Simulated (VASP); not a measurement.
# Transverse strain, stress and strain energy of wurtzite AlN under uniaxial [0001] stress at LDA level

Calculated here is the response of wurtzite AlN to a strain $x$ imposed along [0001], from 2 % compression to 2 % tension, with the crystal free to widen or narrow across the axis. Strains and energies are measured from the LDA-relaxed crystal, and tension counts as positive. The problem is to find the Young's modulus and Poisson's ratio for this axis, and the strain at which constant values of the two cease to describe the crystal. Both numbers matter for AlN films in acoustic resonators and for strained nitride layers, where a stress along one direction changes the dimensions along the others. The transverse strain at +1.5 % is to be estimated from the other rows.

## Computational details

The start is a typed prototype cell. The crystal was relaxed with LDA. Strain is imposed along [0001]; the strain across the axis is adjusted until the stress across it vanishes, and the atoms are relaxed with LDA. VASP 6.6.1, plane waves with PAW, cutoff 600 eV, no spin polarisation, no spin-orbit coupling, k mesh 11×11×6, static lattice.

Notes on method and selection:

- Runs that did not converge, have known faults or may not be shown are not listed, and runs on Ansatz's PAW sets soft_1 and soft_2 are kept to separate tables.

Columns:

- strain (%): strain along the axis (tension positive).
- gap (eV): band gap on the k mesh at LDA.
- transverse strain (%): strain across the axis.
- stress (GPa): stress along the axis, tension positive.
- strain energy (meV/atom): energy per atom above the relaxed crystal.

## Results

| member | strain (%) | gap (eV) | transverse strain (%) | stress (GPa) | strain energy (meV/atom) |
| --- | --- | --- | --- | --- | --- |
| −2 % | −2.0 | 4.351 | 0.446 | −6.07 | 4.073 |
| −1.5 % | −1.5 | 4.368 | 0.328 | −4.62 | 2.328 |
| −1 % | −1.0 | 4.382 | 0.213 | −3.14 | 1.055 |
| −0.5 % | −0.5 | 4.393 | 0.105 | −1.56 | 0.2753 |
| 0 % | 0.0 | 4.402 | −0.003 | 0.04 | 0.00132 |
| +0.5 % | 0.5 | 4.407 | −0.104 | 1.69 | 0.2406 |
| +1 % | 1.0 | 4.411 | −0.203 | 3.36 | 1.015 |
| +1.5 % | 1.5 | ? | ? | ? | ? |
| +2 % | 2.0 | 4.409 | −0.385 | 6.80 | 4.174 |

Cells marked ? are withheld until the estimate has been made.

Least-squares fits to the members shown, with x = strain (%); R² and errors in the fitted variable (y, or ln y where the fit is in ln y):

| y | members | fit | R² | rms residual | leave-one-out rms | the same for the mean of the others |
| --- | --- | --- | --- | --- | --- | --- |
| transverse strain (%) | 8 | y = 0.01053 − 0.2085 x | 1.00 | 0.013 | 0.021 | 0.30 |
| stress (GPa) | 8 | y = 0.1661 + 3.219 x | 1.00 | 0.13 | 0.20 | 4.6 |

## Reading the trend

Because the stress across the axis vanishes, the slope of stress against strain is the Young's modulus along [0001], not the stiffness constant $C_{33}$, which holds the width fixed and is larger. From the ±0.5 % rows it is (1.69 + 1.56) / 1.0 = 3.25 GPa per %, or 3.25 × 100 = 325 GPa. The same rows give Poisson's ratio, $\nu = C_{13}/(C_{11}+C_{12})$, as (0.104 + 0.105) / 1.0 = 0.209.

Neither number stays constant. Between −2 and −1.5 % the transverse strain changes by (0.328 − 0.446) / 0.5 = −0.236 per unit of axial strain; between +1 and +2 % it changes by only −0.182. Over the same intervals the stress slope rises from 2.90 to 3.44 GPa per %. AlN thus stiffens in tension, whereas stretched bonds alone would soften it.

The wurtzite geometry offers a reason. Compression raises the internal parameter, which is the Al–N separation along the axis as a fraction of $c$, and flattens the Al–N double layers, towards a structure with planar layers. Flattening pushes the atoms apart sideways and takes up axial strain by bending bond angles, which costs less than shortening bonds. If the layers flatten more readily the flatter they already are, compression widens the crystal more per unit of strain and lowers the modulus; tension, which puckers the layers further, does the reverse. Both signs agree with the table, but the strains and stresses alone do not prove this cause.

At ±2 % a constant modulus gives a stress of magnitude 3.25 × 2 = 6.50 GPa, against 6.80 GPa in tension and 6.07 GPa in compression, so it misses by 4 and 7 %. A constant Poisson's ratio gives a transverse strain of magnitude 0.209 × 2 = 0.418 %, against 0.385 and 0.446 %, and misses by 9 and 6 %. At ±1 % both are good to within 4 %. If errors are to stay below 5 %, constant values therefore serve over ±1 % strain but not over ±2 %.

Averaged over compression and tension, the strain energy is nearly harmonic, because the cubic term cancels: the mean is (1.055 + 1.015) / 2 = 1.035 meV/atom at ±1 % and (4.073 + 4.174) / 2 = 4.124 meV/atom at ±2 %. The ratio is 4.124 / 1.035 = 3.98, where a parabola gives 4. At ±0.5 and ±1 % compression costs slightly more than tension, opposite to what the stresses imply. A small offset between the energy minimum and the zero of stress, as a finite plane-wave basis produces, would account for this.

## Predicting the missing value

Plain estimates from the members shown:

- +1.5 %, fit at x = 1.5: −0.302 %
- +1.5 %, straight-line interpolation between +1 % and +2 %: w = (1.5 − 1.0) / (2.0 − 1.0) = 0.500, so −0.203 + 0.500 × (−0.385 − (−0.203)) = −0.294 %

The straight-line fit is the weaker of the two plain estimates, because it ignores a curvature that is plain in the rows. Interpolation between +1 and +2 % follows the local slope and gives −0.294 %. It still replaces a curve by its chord, and that error can be removed.

With $y$ the transverse strain and $x$ the axial strain, both in %, the coefficient of $x^2$ follows from the outer rows and the unstrained one:

$c = [y(2) + y(-2) - 2y(0)]/(2 \cdot 2^2)$

(−0.385 + 0.446 + 0.006) / 8 = 0.0084 per %.

Midway between two points a distance 1 % apart, a parabola lies below its chord by $c/4$, here 0.0084 / 4 = 0.0021 %. The estimate becomes −0.294 − 0.0021 = −0.296 %.

The same route can be tried on the five shown members that have neighbours 0.5 % away on both sides. At −1.5 %, for example, it gives (0.446 + 0.213) / 2 − 0.0021 = 0.327 %, against 0.328 % calculated. Over the five members, from −1.5 to +0.5 %, the rms miss is 0.0014 %, and the largest is 0.0021 %, at −0.5 %. These misses are close to the printed rounding and to the residual −0.003 % of the unstrained row. Rounded up to the third decimal, the rms miss gives an error of 0.002 %.

**Committed estimate, +1.5 %: transverse strain = −0.296 ± 0.002 %.**

## Check

| member | strain (%) | gap (eV) | transverse strain (%) | stress (GPa) | strain energy (meV/atom) |
| --- | --- | --- | --- | --- | --- |
| +1.5 % | 1.5 | 4.412 | −0.297 | 5.05 | 2.326 |

| member | estimate | transverse strain (%) | computed | estimate − computed | miss in error bars |
| --- | --- | --- | --- | --- | --- |
| +1.5 % | committed | −0.296 | −0.297 | +0.001 | 0.5 |
| +1.5 % | fit | −0.302 | −0.297 | −0.005 |  |
| +1.5 % | interpolation | −0.294 | −0.297 | +0.003 |  |

transverse strain (%) against strain (%):

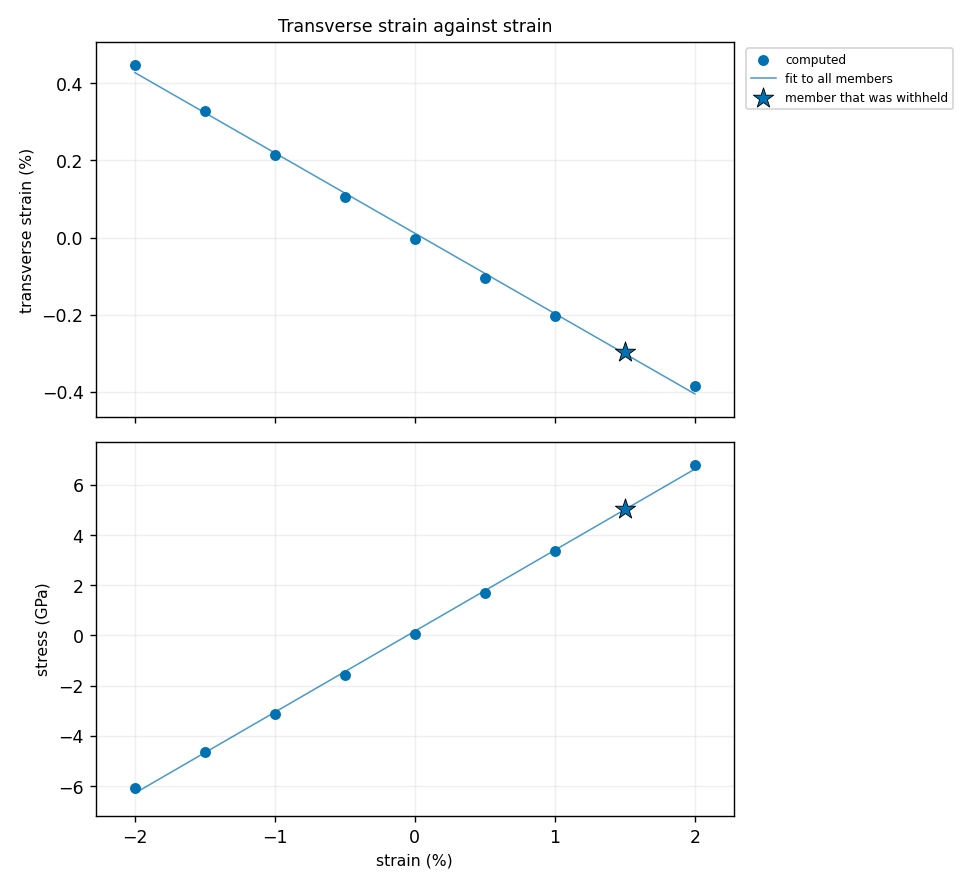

The estimate of −0.296 % lies 0.001 % from the computed −0.297 %, half an error bar away. Interpolation missed by 0.003 % and the straight-line fit by 0.005 %, so the correction for curvature had the right sign and removed most of the interpolation error.

The new row also extends the stiffening in tension. The stress slope is (5.05 − 3.36) / 0.5 = 3.38 GPa per % between +1 and +1.5 %, and (6.80 − 5.05) / 0.5 = 3.50 GPa per % between +1.5 and +2 %. Lateral contraction weakens over the same two steps, from 0.188 to 0.176 per unit of axial strain.

Both changes have the signs expected from puckering of the Al–N double layers. They are a weak test of that mechanism, however, because any smooth curve with the same curvature would have given the same estimate.

## Members off the line

Least-squares fits to the whole series, with x = strain (%); R² and errors in the fitted variable (y, or ln y where the fit is in ln y):

| y | members | fit | R² | rms residual | leave-one-out rms | the same for the mean of the others |
| --- | --- | --- | --- | --- | --- | --- |
| transverse strain (%) | 9 | y = 0.01111 − 0.2080 x | 1.00 | 0.012 | 0.017 | 0.30 |
| stress (GPa) | 9 | y = 0.1722 + 3.225 x | 1.00 | 0.12 | 0.17 | 4.7 |

Largest departures from the fit to the whole series:

| member | transverse strain (%) | fit | computed − fit | in rms residuals |
| --- | --- | --- | --- | --- |
| +2 % | −0.385 | −0.405 | +0.020 | 1.7 |
| −2 % | 0.446 | 0.427 | +0.019 | 1.6 |
| 0 % | −0.003 | 0.011 | −0.014 | 1.2 |
| +0.5 % | −0.104 | −0.093 | −0.011 | 0.9 |

No row stands out: the departures from the straight line are positive at both ends (+0.020 and +0.019 %) and negative in the middle (−0.014 % at zero strain), as a line drawn through a parabola must leave them. With the curvature of 0.0084 per % and a mean $x^2$ of 15 / 9 = 1.67 over the nine rows, the expected departures are 0.0084 × (4 − 1.67) = +0.020 % at ±2 % and −0.0084 × 1.67 = −0.014 % at zero.

## Rules of thumb and their limits

From −2 to +2 % the transverse strain follows $y = -0.003 - 0.2078x + 0.0084x^2$, both strains in %. The coefficients come from the rows at 0 and ±2 %; the other six are met with an rms miss of 0.001 %, against 0.30 % for the mean of the others. A further strain inside this range can be estimated about as well.

For small loads, a tensile stress of 1 GPa along [0001] lengthens the crystal by 1 / 3.25 = 0.31 % and narrows it by 0.209 / 3.25 = 0.064 %.

No omitted effect rivals the full spread of the table, but two matter for the modulus. The calculation holds the macroscopic electric field at zero; in an electrically open crystal the piezoelectric field would raise the modulus by roughly 10 %. Lattice vibrations at room temperature lower it by roughly 1 or 2 %.
